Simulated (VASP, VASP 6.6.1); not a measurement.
# Notes on computing the lattice constant of silver with VASP

*A beginner's notebook, kept as written. Several of its settings and conclusions are unsound; a review follows at the end.*

## Experiment

The value I want to reproduce is the lattice constant of plain silver, a = 4.084 Å. It was measured by powder X-ray diffraction on a commercial spherical silver powder and comes from "Electronic Percolation Threshold of Self-Standing Ag-LaCoO3 Porous Electrodes for Practical Applications" (2019, PubMed Central 6696329). An ICSD card is cited beside the value. The values for silver inside the composite electrodes spread over roughly 0.005 Å, so the numbers move a little from sample to sample. The temperature is not given with the value.

| compared with | measured | source's wording or label | method |
| --- | --- | --- | --- |
| lattice constant a of the conventional cell (Å) | 4.084 | 0.4084 nm (a) | powder XRD |

Conditions are those given with the value in the passage it was taken from; "not stated" means there, and the paper may say more elsewhere.

## Plan

I want to let VASP relax the silver cell and compare the a that comes out with the powder value. The model is one silver atom in the face-centred cubic cell, starting from a published refinement with a = 4.086 Å, which is already 0.002 Å above the powder value. I will call it a success if I land within 0.01 Å, which is about twice the spread among the composites. I have no better reason for that number. My plan is to start with quick settings and change things only if the result looks wrong.

System: Ag, space group Fm-3m (Silver); Fm-3m (No. 225), 1 atom in the cell; conventional a = 4.086 A, from a published structure refinement (COD).

On the selection of runs and values: 5 further cited values are not listed: repeats, values quoted from earlier work, more than five for one quantity or six quantities, optical onsets of an indirect gap, modes that a denser mesh moves by over 3 %, or quantities that fewer than three runs give.

## 1. A quick first relaxation

I am using PBEsol because I have read that it was made for solids. To save time I set the cutoff to 200 eV and the precision to Low. With only one atom in the cell I do not see what could go wrong, and I expect a to stay close to where it starts.

**Run 1.** VASP 6.6.1: PBEsol; 200 eV, 18x18x18 k mesh; cell and atoms relaxed, PREC = Low.

Key lines of the input:
```
ALGO = Normal
EDIFF = 1E-06
EDIFFG = -0.006
ENCUT = 200
GGA = PS
IBRION = 2
ISIF = 3
ISMEAR = 1
NBANDS = 11
NELM = 60
NSW = 50
PREC = Low
SIGMA = 0.15
KPOINTS: Gamma, 18 18 18
PAW data sets: Ag (PBE 64)
```

Command:
```
mpirun -np 4 vasp_std
```

Selected lines of the output:
```
 reached required accuracy - stopping structural energy minimisation
  external PRESSURE =       0.5308665 kB  Pullay stress =       0.0000000 kB
```

Converged; 3.6 s on 4 cores of Intel Xeon 6975P-C (Granite Rapids), shared host.

| quantity | run 1 | measured | deviation |
| --- | --- | --- | --- |
| lattice constant a of the conventional cell (Å) | 3.894 | 4.084 | −0.190 (−4.7 %) |
| volume of the conventional cell (Å³) | 59.04 |  |  |
| space group at the end | Fm-3m |  |  |
| pressure left at the end (GPa) | 0.0531 |  |  |

The cell shrank to a = 3.894 Å, which is 0.190 Å below the powder value and far outside my 0.01 Å. VASP says it reached the required accuracy and the pressure left is only 0.0531 GPa, so I take the calculation itself to be fine. That leaves the functional, and it looks to me as if PBEsol pulls silver together much too strongly.

## 2. Changing the functional to PBE

I have read that PBE gives larger cells than PBEsol, which is the direction I need. The run is so short that I can afford 450 eV this time, and I leave the precision setting alone. I expect a to come out close to 4.08 Å.

**Run 2.** VASP 6.6.1: PBE; 450 eV, 18x18x18 k mesh; cell and atoms relaxed.

Key lines of the input, as changed from run 1:
```diff
- ENCUT = 200
- GGA = PS
+ ENCUT = 450
+ GGA = PE
- NELM = 60
+ NELM = 100
- PREC = Low
+ PREC = Accurate
```

Selected lines of the output:
```
 reached required accuracy - stopping structural energy minimisation
      direct lattice vectors                 reciprocal lattice vectors
    -0.000000000  2.072918219  2.072918219    -0.241205849  0.241205849  0.241205849
```

Converged; 7 s of wall time.

| quantity | run 2 | measured | deviation |
| --- | --- | --- | --- |
| lattice constant a of the conventional cell (Å) | 4.146 | 4.084 | +0.062 (+1.5 %) |
| volume of the conventional cell (Å³) | 71.26 |  |  |
| space group at the end | Fm-3m |  |  |
| pressure left at the end (GPa) | 0.0186 |  |  |

PBE gives a = 4.146 Å, now 0.062 Å too large. That is much nearer than the first run but still outside my 0.01 Å, and my guess of 4.08 Å was too low. I also have to correct my last note: the precision was set to Accurate for this run, not left at Low. The measured value lies between the two results, so I read this as PBEsol binding silver too strongly and PBE too weakly.

## 3. Trying r2SCAN

I want a functional that falls between the two, and r2SCAN is newer than both, so I hope it is simply better. I keep 450 eV and the same mesh because that run finished without trouble. I expect something around 4.09 Å, and if it comes out close I will use it.

**Run 3.** VASP 6.6.1: r2SCAN; 450 eV, 18x18x18 k mesh; cell and atoms relaxed, LASPH on.

Key lines of the input, as changed from run 2:
```diff
- GGA = PE
+ LASPH = .TRUE.
+ METAGGA = R2SCAN
```

Selected lines of the output:
```
 reached required accuracy - stopping structural energy minimisation
     0.000000000  2.052905601  2.052905601    -0.243557229  0.243557229  0.243557229
```

Converged; 32 s of wall time.

| quantity | run 3 | measured | deviation |
| --- | --- | --- | --- |
| lattice constant a of the conventional cell (Å) | 4.106 | 4.084 | +0.022 (+0.5 %) |
| volume of the conventional cell (Å³) | 69.21 |  |  |
| space group at the end | Fm-3m |  |  |
| pressure left at the end (GPa) | 0.0167 |  |  |

r2SCAN gives a = 4.106 Å, still 0.022 Å above the powder value. It does fall between the other two as I hoped, but it misses my 0.01 Å, so I cannot use it yet.

## 4. Adding a van der Waals term

The cell is still slightly too big, so I need something that pulls the atoms together. I have read that van der Waals corrections add attraction, and rVV10 can be switched on together with r2SCAN. I expect a to drop by about 0.02 Å, which would put it on the measured value, and then I would stop there.

**Run 4.** VASP 6.6.1: r2SCAN + rVV10; 450 eV, 18x18x18 k mesh; cell and atoms relaxed, relaxed twice, LASPH on.

Key lines of the input, as changed from run 3:
```diff
+ BPARAM = 11.95
+ CPARAM = 0.0093
+ IVDW_NL = 2
+ LUSE_VDW = .TRUE.
```

Selected lines of the output:
```
[second pass]
   3 F= -.21038333E+02 E0= -.21038368E+02  d E =0.159025E-05
 reached required accuracy - stopping structural energy minimisation
    -0.000000000  2.041483767  2.041483767    -0.244919900  0.244919900  0.244919900
```

Converged; 82 s of wall time (all steps together).

| quantity | run 4 | measured | deviation |
| --- | --- | --- | --- |
| lattice constant a of the conventional cell (Å) | 4.083 | 4.084 | −0.001 (−0.0 %) |
| volume of the conventional cell (Å³) | 68.07 |  |  |
| space group at the end | Fm-3m |  |  |
| pressure left at the end (GPa) | −0.0474 |  |  |

With rVV10 added, a comes out at 4.083 Å, only 0.001 Å below the powder value and well inside my 0.01 Å. The cell shrank by 0.023 Å compared with plain r2SCAN, almost exactly the drop I was hoping for. I take this to mean that the van der Waals attraction was the missing piece, and I will use this number and stop here.

## Summary of runs

| run | settings | lattice constant a of the conventional cell (Å) | deviation | cost |
| --- | --- | --- | --- | --- |
| 1 | PBEsol, 200 eV, PREC = Low | 3.894 | −0.190 (−4.7 %) | under 1 core-min |
| 2 | PBE, 450 eV | 4.146 | +0.062 (+1.5 %) | under 1 core-min |
| 3 | r2SCAN, 450 eV, LASPH on | 4.106 | +0.022 (+0.5 %) | 2.1 core-min |
| 4 | r2SCAN + rVV10, 450 eV, relaxed twice, LASPH on | 4.083 | −0.001 (−0.0 %) | 5.5 core-min |
|  | measured | 4.084 |  |  |

The runs in order, against the measurement:

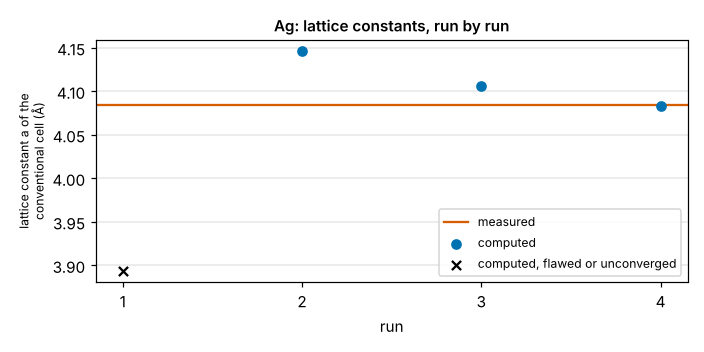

## Closing entry

I have a lattice constant for silver that I am happy with: 4.083 Å from r2SCAN with rVV10, against 4.084 Å from the powder. That meets my target of 0.01 Å, and none of the other three runs did. Plain r2SCAN came second at 4.106 Å, PBE was too large at 4.146 Å, and PBEsol was the worst by far at 3.894 Å.

What I take from this is that the choice of functional decides everything and that silver needs the van der Waals term. I have crossed PBEsol off my list for metals, since it missed by 0.190 Å even though the run converged without complaint. The cutoff does not seem to be something I need to worry about. Unless you object, I will use r2SCAN with rVV10 for the other metals as well, and I will put 4.083 Å in the group's table as the calculated value for silver.

## An expert's review

Further runs made for the review:

| reviewer's run | settings | lattice constant a of the conventional cell (Å) | deviation | cost |
| --- | --- | --- | --- | --- |
| R1 | PBEsol, 450 eV, relaxed twice | 4.053 | −0.031 (−0.8 %) | under 1 core-min |
| R2 | PBEsol, 600 eV, relaxed twice | 4.052 | −0.032 (−0.8 %) | under 1 core-min |
| R3 | PBEsol, 250 eV, relaxed twice | 4.021 | −0.063 (−1.6 %) | under 1 core-min |
| R4 | PBEsol + D3(BJ), 450 eV, relaxed twice | 3.993 | −0.091 (−2.2 %) | under 1 core-min |
|  | measured | 4.084 |  |  |

The plan names its source and sample properly, but the 0.01 Å target does not suit this comparison. The calculations have static nuclei, while the powder was presumably measured at room temperature. Thermal expansion and zero-point motion together enlarge silver's lattice constant by roughly 0.02 Å, twice the target. The starting cell was also the refined one stretched by 3 % in volume, which does no harm.

Run 1 contains the serious mistake. A cutoff of 200 eV with low precision is too poor for relaxing a cell, even with one atom in it. The sign was a collapse to 3.894 Å where little change was expected. "Reached required accuracy" and a small remaining pressure show only that the relaxation finished within its poor basis; they do not test that basis. With PBEsol at 450 eV I get 4.053 Å (R1), and 600 eV changes this by only 0.001 Å (R2). Even 250 eV leaves the cell 0.032 Å smaller than in R1 (R3). The sound calculation also costs under one core-minute, so nothing was saved.

Run 2 changed functional, cutoff and precision together, so its difference from run 1 cannot be credited to the functional. The author rightly corrected the note about precision. PBE does make silver too large, but run 1 says nothing about how strongly PBEsol binds. R1 is only 0.031 Å below the powder value, and much of that is the missing thermal and zero-point expansion.

Run 3 is a reasonable calculation, with LASPH rightly switched on. r2SCAN does fall between PBEsol and PBE, also when R1 replaces run 1. Being newer, however, is no evidence of being better.

In run 4 the van der Waals term was chosen because it would shrink the cell, and the work stopped once the number fitted. The term does improve r2SCAN here, but agreement within 0.001 Å is chance: allowing for thermal and zero-point effects, the result is roughly 0.02 Å too large. Nor does it show that silver needs such a term whatever the functional. Adding D3(BJ), a different correction, to PBEsol shrinks the cell to 3.993 Å and worsens the agreement (R4).

The closing entry therefore needs correcting. The functional does not decide everything: poor settings moved PBEsol by 0.159 Å, more than the 0.093 Å between PBE and sound PBEsol. The cutoff matters, and PBEsol should go back on the list. One metal cannot justify r2SCAN with rVV10 for the others. The 4.083 Å may enter the group's table only with its functional and "static lattice" beside it.

My verdict is that sound simulation reproduces silver's lattice constant to within about two per cent, depending on the functional. I would rely on R1, because its cutoff was tested. Once thermal and zero-point effects are allowed for, it lies within roughly 0.01 Å of the powder value. The remaining differences come mainly from the approximate functionals, and they give no reason to doubt the measurement.

[Logs are printed without paths, hosts, clocks, repeated set-up lines and the standing remarks that a program may print on its own settings, such as how far it seeks lower states.]

[The runs shown are a pick from a larger set of finished runs; failed, doubtful and other runs were left out of it ahead of writing. So were measured values far from every level or from commonly accepted values, and agreement can look better than it is. Lines of input and output are excerpts and may be shortened.]
